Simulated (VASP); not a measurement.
# Conduction-valley splitting and gap of silicon under biaxial (001) strain at TB-mBJ with spin-orbit coupling

Unstrained silicon has six equal conduction valleys, yet stretching it in the (001) plane puts its electrons into two of them, and squeezing it puts them into the other four. For a transistor channel in that plane the two valleys along [001] are the useful ones, because their mass for motion in the plane is light.

The brief is a silicon layer whose [001] valleys lie at least 0.10 eV below the [100] valleys, whose gap stays at or above 0.90 eV, and whose strain is as small as these two demands allow, since a strained layer relaxes through dislocations more readily as the strain grows. The splitting is the [100] valley less the [001] valley. The gap is the lower of the two, counted from the valence-band top at the zone centre.

## Method

The start is a typed prototype cell. The crystal was relaxed with LDA. Equal strain is imposed in the (001) plane; the strain along the normal is adjusted until the normal stress vanishes, and the atoms are relaxed with LDA. VASP 6.6.1, plane waves with PAW, cutoff 450 eV, no spin polarisation. Band edges are single points at TB-mBJ with spin-orbit coupling on these cells, k mesh 8×8×8, read on short lines of k points at the zone centre and through the valleys; energies are counted from the valence-band top at the zone centre.  All levels use the PAW data sets made with LDA.

Notes on method and selection:

- A valley's energy from the valence-band top holds the shift of that top as well as the shift of the valley.
- The TB-mBJ parameter c is fixed anew from the density of each cell, so it changes along the series.
- Runs that did not converge, have known faults or may not be shown are not listed, and runs on Ansatz's PAW sets soft_1 and soft_2 are kept to separate tables.

Columns:

- strain (%): strain in the plane (tension positive).
- splitting (eV): valley along [100] less valley along [001].
- Δ [001] (eV): minimum of the conduction band along Γ–X in the [001] direction.
- Δ [100] (eV): minimum of the conduction band along Γ–X in the [100] direction.
- L [111] (eV): conduction level at L along [111].
- Γ level (eV): lowest conduction level at Γ.

Input lines of one member:

```
PREC = Accurate
ENCUT = 450
EDIFF = 1E-06
NELM = 150
ISMEAR = 0
SIGMA = 0.02
LREAL = .FALSE.
ALGO = Normal
METAGGA = MBJ
LASPH = .TRUE.
LNONCOLLINEAR = .TRUE.
NBANDS = 18
GGA_COMPAT = .FALSE.
LSORBIT = .TRUE.
KPAR = 2
```

Command (options for logging and memory left out): `mpirun -np 2 vasp_ncl`

## Numbers

| member | strain (%) | splitting (eV) | Δ [001] (eV) | Δ [100] (eV) | L [111] (eV) | Γ level (eV) |
| --- | --- | --- | --- | --- | --- | --- |
| −2 % | −2.0 | −0.326 | 1.291 | 0.965 | 2.178 | 3.061 |
| −1.5 % | −1.5 | −0.244 | 1.275 | 1.030 | 2.210 | 3.092 |
| −1 % | −1.0 | −0.163 | 1.258 | 1.095 | 2.234 | 3.123 |
| −0.5 % | −0.5 | −0.081 | 1.239 | 1.158 | 2.248 | 3.152 |
| 0 % | 0.0 | 0.000 | 1.220 | 1.220 | 2.255 | 3.177 |
| +0.5 % | 0.5 | 0.081 | 1.141 | 1.222 | 2.195 | 3.130 |
| +1 % | 1.0 | 0.161 | 1.055 | 1.216 | 2.122 | 3.067 |
| +1.5 % | 1.5 | 0.243 | 0.967 | 1.210 | 2.043 | 2.999 |
| +2 % | 2.0 | 0.324 | 0.880 | 1.204 | 1.961 | 2.932 |

splitting (eV) against strain (%):

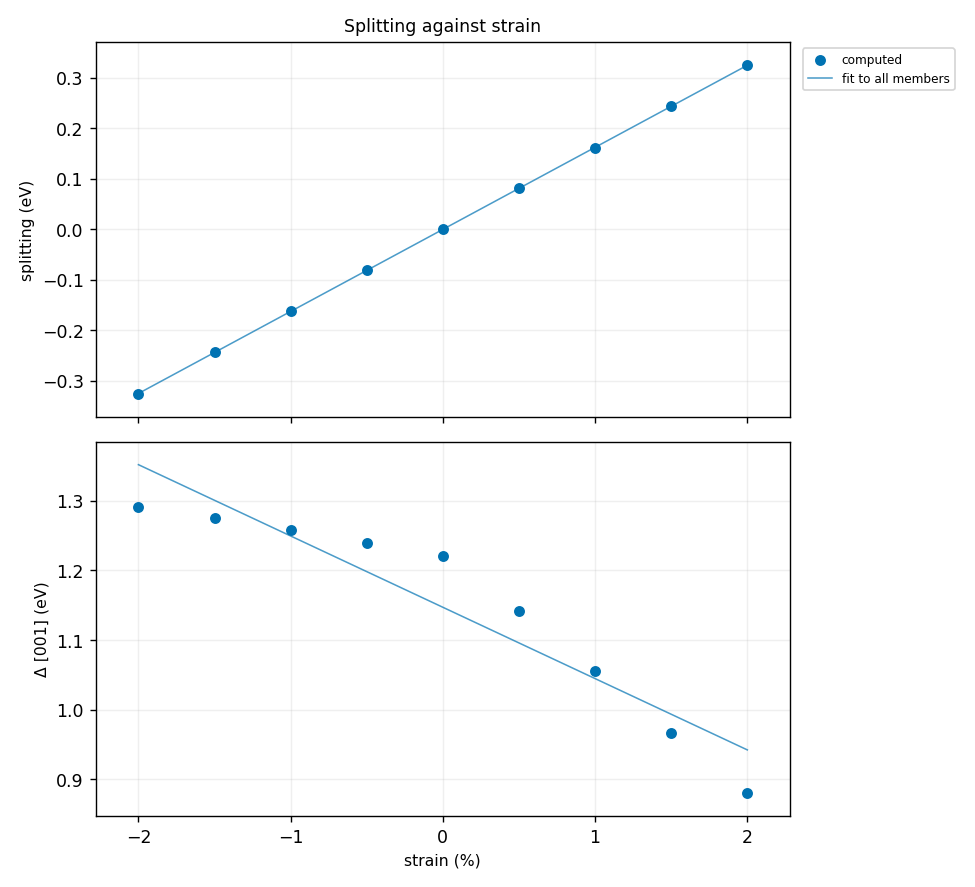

Least-squares fits to the whole series, with x = strain (%); R² and errors in the fitted variable (y, or ln y where the fit is in ln y):

| y | members | fit | R² | rms residual | leave-one-out rms | the same for the mean of the others |
| --- | --- | --- | --- | --- | --- | --- |
| splitting (eV) | 9 | y = −5.5556×10⁻⁴ + 0.16237 x | 1.00 | 5.0×10⁻⁴ | 6.4×10⁻⁴ | 0.24 |
| Δ [001] (eV) | 9 | y = 1.147 − 0.1024 x | 0.90 | 0.045 | 0.061 | 0.16 |

## Why the values move as they do

Under tension the pair of valleys along [001] is lowest; under compression the four along [100] and [010] are. The splitting follows a straight line through zero, with a slope of 0.162 eV per % of in-plane strain. The L level stays more than 1 eV above the lowest valley in every row.

The simplest formula is E[100] − E[001] = Ξᵤ(ε∥ − ε⊥), where ε∥ is the strain in the plane, ε⊥ that along the normal and Ξᵤ the deformation potential. With the normal stress released, ε⊥ has the opposite sign to ε∥ and is somewhat smaller in size. Per unit of ε∥ instead of per %, the slope is 0.162 × 100 = 16.2 eV, so Ξᵤ must exceed 16.2 / 2 = 8.1 eV.

A nearest-neighbour orbital model gives the sign. Near X along [001] the conduction state is an antibonding mixture of s and p_z. In-plane tension tilts the bonds away from the normal, which weakens this s–p_z coupling and lowers the antibonding level. Along [100] the change of bond angle strengthens the corresponding coupling and so pushes that level up relative to the [001] one. The bonds also lengthen slightly, but this acts on both kinds of valley nearly alike and largely cancels in the splitting.

The separate valley energies are not straight lines. From 0 to +2 % the [001] valley changes by (0.880 − 1.220) / 2.0 = −0.170 eV per %, but from −2 % to 0 by only (1.220 − 1.291) / 2.0 = −0.036 eV per %. The reference level causes most of this kink: strain of either sign splits the valence-band top, and its upper branch moves towards the conduction band. The L level, whose valleys stay equivalent under this strain, also peaks at zero strain. Both valleys are counted from the same top, so its shift cancels in the splitting.

## Exceptions

Largest departures from the fit to the whole series:

| member | splitting (eV) | fit | computed − fit | in rms residuals |
| --- | --- | --- | --- | --- |
| +1 % | 0.161 | 0.162 | −0.001 | 1.6 |
| −0.5 % | −0.081 | −0.082 | +0.001 | 1.5 |
| −2 % | −0.326 | −0.325 | −0.001 | 1.4 |
| 0 % | 0.000 | −0.001 | +0.001 | 1.1 |

In the splitting, the largest departure from the line is 0.001 eV, which is the printed rounding, and all nine rows can be used.

The straight line through the [001] valley energies is a different matter. It beats the mean of the other members (leave-one-out error 0.061 against 0.16 eV), but its misses have a pattern: the unstrained row lies 1.220 − 1.147 = 0.073 eV above it, while both ends lie about 0.06 eV below. That is the kink at zero strain, not a fault in the unstrained row. Estimates of the gap should therefore use neighbouring rows on the same side of zero. The TB-mBJ parameter c also changes from cell to cell and may add a little to the slopes of the separate levels.

## Selection

The four compressed rows fail because their splitting is negative, and the unstrained row because it is zero. At +0.5 % the splitting is 0.081 eV, short of 0.10 eV. At +2 % the gap is 0.880 eV, below the floor of 0.90 eV. Two rows remain: +1 %, with a splitting of 0.161 eV and a gap of 1.055 eV, and +1.5 %, with 0.243 and 0.967 eV.

For the device, the splitting S matters through the share of electrons left in the four in-plane valleys:

f = 2e / (1 + 2e), with e = exp(−S / kT) and kT = 0.026 eV at 300 K.

The factor 2 is the ratio of four valleys to two. The formula assumes dilute carriers and the same density of states in each valley. It gives about 8 % at +0.5 %, 0.4 % at +1 % and 0.02 % at +1.5 %. The step from +1 % to +1.5 % thus gains almost nothing in population and costs 1.055 − 0.967 = 0.088 eV of gap.

The pick is +1 %, the smaller strain of the two; +1.5 % is the runner-up.

TB-mBJ gaps of simple semiconductors are typically off by roughly 0.1 to 0.2 eV. The pick has a margin of 1.055 − 0.90 = 0.155 eV, so it survives an overestimate of 0.1 eV but not one of 0.2 eV; the runner-up, with a margin of 0.967 − 0.90 = 0.067 eV, survives neither. For the splitting an error of roughly 10 % is a reasonable allowance. It would lower the splitting to 0.161 × 0.9 = 0.145 eV and raise f to about 0.8 %, still well inside the brief.

A demand for a splitting of 0.2 eV would hand the choice to +1.5 %. A finer set of strains would move it the other way, since the fitted line reaches 0.10 eV at 0.10 / 0.162 = 0.62 %.

## Rules of thumb and their limits

Between −2 and +2 % the sign of the strain decides which valleys are lowest, and the splitting is proportional to the strain. The gap shrinks for either sign.

Two omitted effects matter for a device, though both should be smaller than the range of the gap in this series, 1.220 − 0.880 = 0.340 eV. Confinement in a layer about 5 nm thick adds some tens of meV to the splitting under tension, because the [001] valleys are heavy along the normal and rise less. Warming to room temperature typically lowers a semiconductor gap by some hundredths of an eV, which uses up part of the pick's margin.

[Logs are printed without paths, hosts, clocks, repeated set-up lines and the standing remarks that a program may print on its own settings, such as how far it seeks lower states.]
